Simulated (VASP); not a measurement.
# Elastic response of GaP (F-43m) to biaxial strain in the (111) plane: normal strain, stress and strain energy with LDA

The usual rule of thumb is that a semiconductor film strained by a percent or two obeys linear elasticity: stress grows in proportion to strain, and stored energy with its square. We test this for GaP strained equally in all directions of the (111) plane, from −2 % to +2 %, with the normal direction free of stress. The answer decides whether two constants are enough to convert a lattice mismatch into a film stress. Strains and energies are measured from the crystal relaxed with LDA, and tension is positive. We derive the bulk modulus B and the shear modulus C44 from the series, then see how the error of constant moduli grows with strain.

## Systems and settings

The start is a typed prototype cell. The crystal was relaxed with LDA. Equal strain is imposed in the (111) plane; the strain along the normal is adjusted until the normal stress vanishes, and the atoms are relaxed with LDA. VASP 6.6.1, plane waves with PAW, cutoff 450 eV, no spin polarisation, no spin-orbit coupling, k mesh 10×10×10, static lattice.

Notes on method and selection:

- Runs that did not converge, have known faults or may not be shown are not listed, and runs on Ansatz's PAW sets soft_1 and soft_2 are kept to separate tables.

Columns:

- strain (%): strain in the plane (tension positive).
- gap (eV): band gap on the k mesh at LDA.
- normal strain (%): strain along the normal.
- stress (GPa): in-plane stress, tension positive.
- strain energy (meV/atom): energy per atom above the relaxed crystal.

## Data

| member | strain (%) | gap (eV) | normal strain (%) | stress (GPa) | strain energy (meV/atom) |
| --- | --- | --- | --- | --- | --- |
| −2 % | −2.0 | 1.184 | 0.950 | −4.46 | 10.92 |
| −1.5 % | −1.5 | 1.260 | 0.708 | −3.28 | 6.15 |
| −1 % | −1.0 | 1.323 | 0.469 | −2.15 | 2.77 |
| −0.5 % | −0.5 | 1.365 | 0.225 | −1.05 | 0.74 |
| 0 % | 0.0 | 1.402 | 0.000 | 0.01 | 0.00 |
| +0.5 % | 0.5 | 1.375 | −0.233 | 1.03 | 0.56 |
| +1 % | 1.0 | 1.347 | −0.456 | 2.01 | 2.34 |
| +1.5 % | 1.5 | 1.224 | −0.675 | 2.96 | 5.31 |
| +2 % | 2.0 | 1.104 | −0.890 | 3.87 | 9.43 |

normal strain (%) against strain (%):

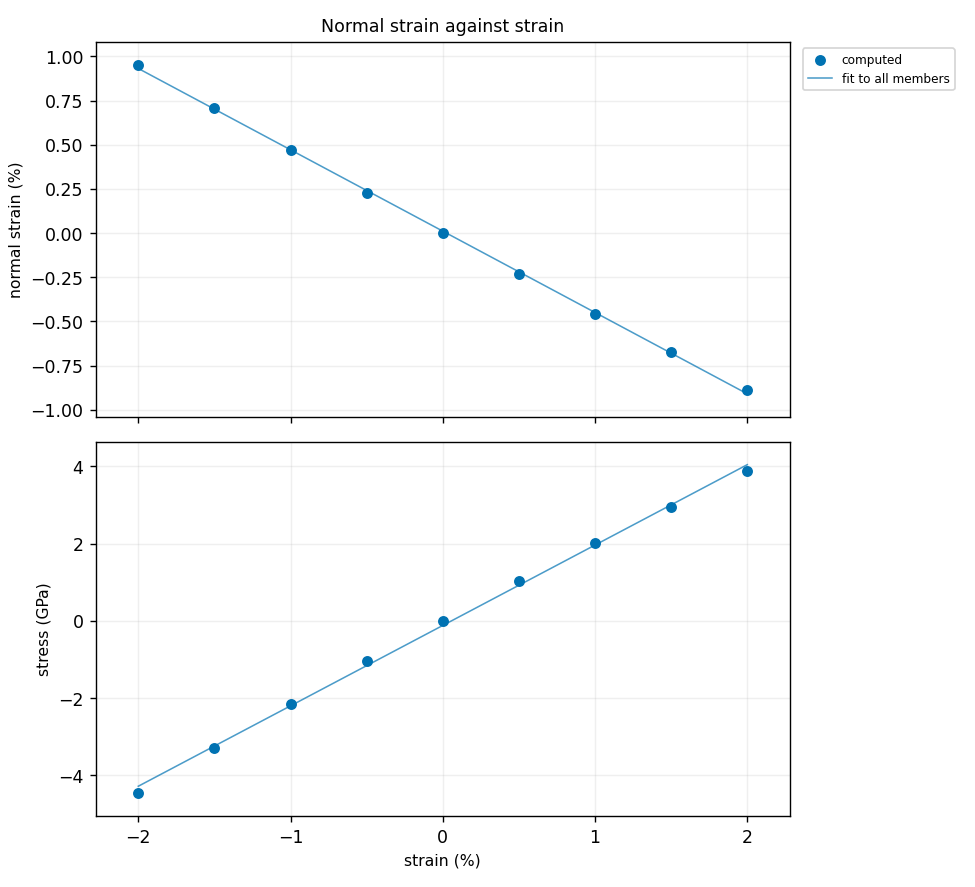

Least-squares fits to the whole series, with x = strain (%); R² and errors in the fitted variable (y, or ln y where the fit is in ln y):

| y | members | fit | R² | rms residual | leave-one-out rms | the same for the mean of the others |
| --- | --- | --- | --- | --- | --- | --- |
| normal strain (%) | 9 | y = 0.01089 − 0.4606 x | 1.00 | 0.013 | 0.018 | 0.67 |
| stress (GPa) | 9 | y = −0.1178 + 2.081 x | 1.00 | 0.11 | 0.16 | 3.0 |

## Interpretation

From −2 % to +2 % in-plane strain, the normal strain falls from 0.950 % to −0.890 % and the in-plane stress rises from −4.46 to 3.87 GPa. The energy rises on both sides of zero, and at equal size of strain it is higher under compression.

The simplest model assumes constant moduli, zero normal stress and atoms that follow the strain to their relaxed positions. Let e be the in-plane strain and n the normal strain, both as fractions, and s the in-plane stress.

1. The strain stretches the three cubic axes equally and changes the angles between them. It is therefore a volume change, resisted by B, plus a trigonal shear, resisted by C44. The combination C11 − C12 does not enter, so the series yields two of the three cubic moduli.
2. The volume strain is 2e + n and the mean stress is 2s/3, hence 2s/3 = B(2e + n).
3. The in-plane stress exceeds the normal stress by s, hence s = 2 C44 (e − n).
4. Eliminating s gives n = −R e, with R = (6B − 4 C44)/(3B + 4 C44).
5. Inserting n in step 3 gives s = M e, with M = 2 C44 (1 + R).
6. Each of the two in-plane directions contributes work s e/2 per volume. With v the volume per atom, the energy per atom is u = v M e².

Read backwards, C44 = M/[2(1 + R)] and B = 2M/[3(2 − R)]. The three parameters are B, C44 and v.

The normal contracts under tension because the crystal resists a change of volume. It contracts by less than would keep the volume constant (R = 2), because the shear costs energy too. This C44 includes the shift of the two sublattices against each other along the normal; with that shift frozen it would be larger.

## The model against the table

We fix the model on the members −1 % and +1 %, averaging the two so that any quadratic term in stress and normal strain cancels.

- R = (0.469 + 0.456)/2 = 0.4625
- M = (2.15 + 2.01)/2 = 2.08 GPa per %, or 208 GPa
- u at 1 % = (2.77 + 2.34)/2 = 2.555 meV/atom

The moduli follow as C44 = 208/(2 × (1 + 0.4625)) = 71.1 GPa and B = 2 × 208/(3 × (2 − 0.4625)) = 90.2 GPa. With 1 GPa Å³ = 6.24 meV, the volume per atom is v = 2.555/(208 × 0.0001 × 6.24) = 19.7 Å³.

For the other members, strains are in %, stresses in GPa and energies in meV/atom.

**−2 %**
- normal strain: 0.4625 × 2 = 0.925; table 0.950
- stress: −2.08 × 2 = −4.16; table −4.46
- energy: 2.555 × 4 = 10.22; table 10.92

**−0.5 %**
- normal strain: 0.4625 × 0.5 = 0.231; table 0.225
- stress: −2.08 × 0.5 = −1.04; table −1.05
- energy: 2.555 × 0.5² = 0.64; table 0.74

**+1.5 %**
- normal strain: −0.4625 × 1.5 = −0.694; table −0.675
- stress: 2.08 × 1.5 = 3.12; table 2.96
- energy: 2.555 × 1.5² = 5.75; table 5.31

**+2 %**
- normal strain: −0.4625 × 2 = −0.925; table −0.890
- stress: 2.08 × 2 = 4.16; table 3.87
- energy: 2.555 × 4 = 10.22; table 9.43

## Outliers

Largest departures from the fit to the whole series:

| member | normal strain (%) | fit | computed − fit | in rms residuals |
| --- | --- | --- | --- | --- |
| +2 % | −0.890 | −0.910 | +0.020 | 1.6 |
| −2 % | 0.950 | 0.932 | +0.018 | 1.4 |
| −0.5 % | 0.225 | 0.241 | −0.016 | 1.3 |
| +0.5 % | −0.233 | −0.219 | −0.014 | 1.1 |

The computed stress lies below the value for constant moduli, fixed at ±1 %, at both ends: by 4.46 − 4.16 = 0.30 GPa at −2 % and by 4.16 − 3.87 = 0.29 GPa at +2 %. A departure of the same sign on both sides is a quadratic term: the moduli are not constant, because shortened bonds are stiffer and stretched bonds softer. The ±1 % rows give its coefficient as (2.01 − 2.15)/2 = −0.07 GPa per %². Adding it brings every row to within about 0.02 GPa. The normal strain is curved as well, lying above the value for constant moduli by 0.950 − 0.925 = 0.025 % at −2 % and by 0.925 − 0.890 = 0.035 % at +2 %. A straight line fitted to such a curve runs below it at the ends and above it near zero, which is the pattern of the outliers listed.

The energy shows a second failure, at small strain. Half the difference between +0.5 % and −0.5 % is (0.56 − 0.74)/2 = −0.09 meV/atom, whereas the curvature of the stress accounts for only (2/3) × (2.555/2.08) × (−0.07) × 0.5³ = −0.007 meV/atom. What fails here is the assumption that energy and stress share the same zero of strain. The likely cause is the finite plane-wave basis: at fixed cutoff a larger cell holds more plane waves, which lowers its energy slightly, while the computed stress lacks this contribution. The sign agrees, since tension costs less energy than the computed stress implies.

## What to take away

Constant moduli give the stress to within 4 % at strains up to 1 % in size, and to about 7 % at ±2 %. For larger mismatches within this range, the quadratic term should be kept.

Two effects outside the model can exceed these departures. A real film above its critical thickness forms misfit dislocations, which reduce the size of the stress and can remove most of it, several GPa at 2 % mismatch. LDA also tends to make lattice constants too short, by very roughly 1 %. Imposing a measured in-plane lattice constant on an LDA crystal would then add a false tension of roughly 2 GPa, so mismatch should be entered as a strain relative to the relaxed LDA crystal.
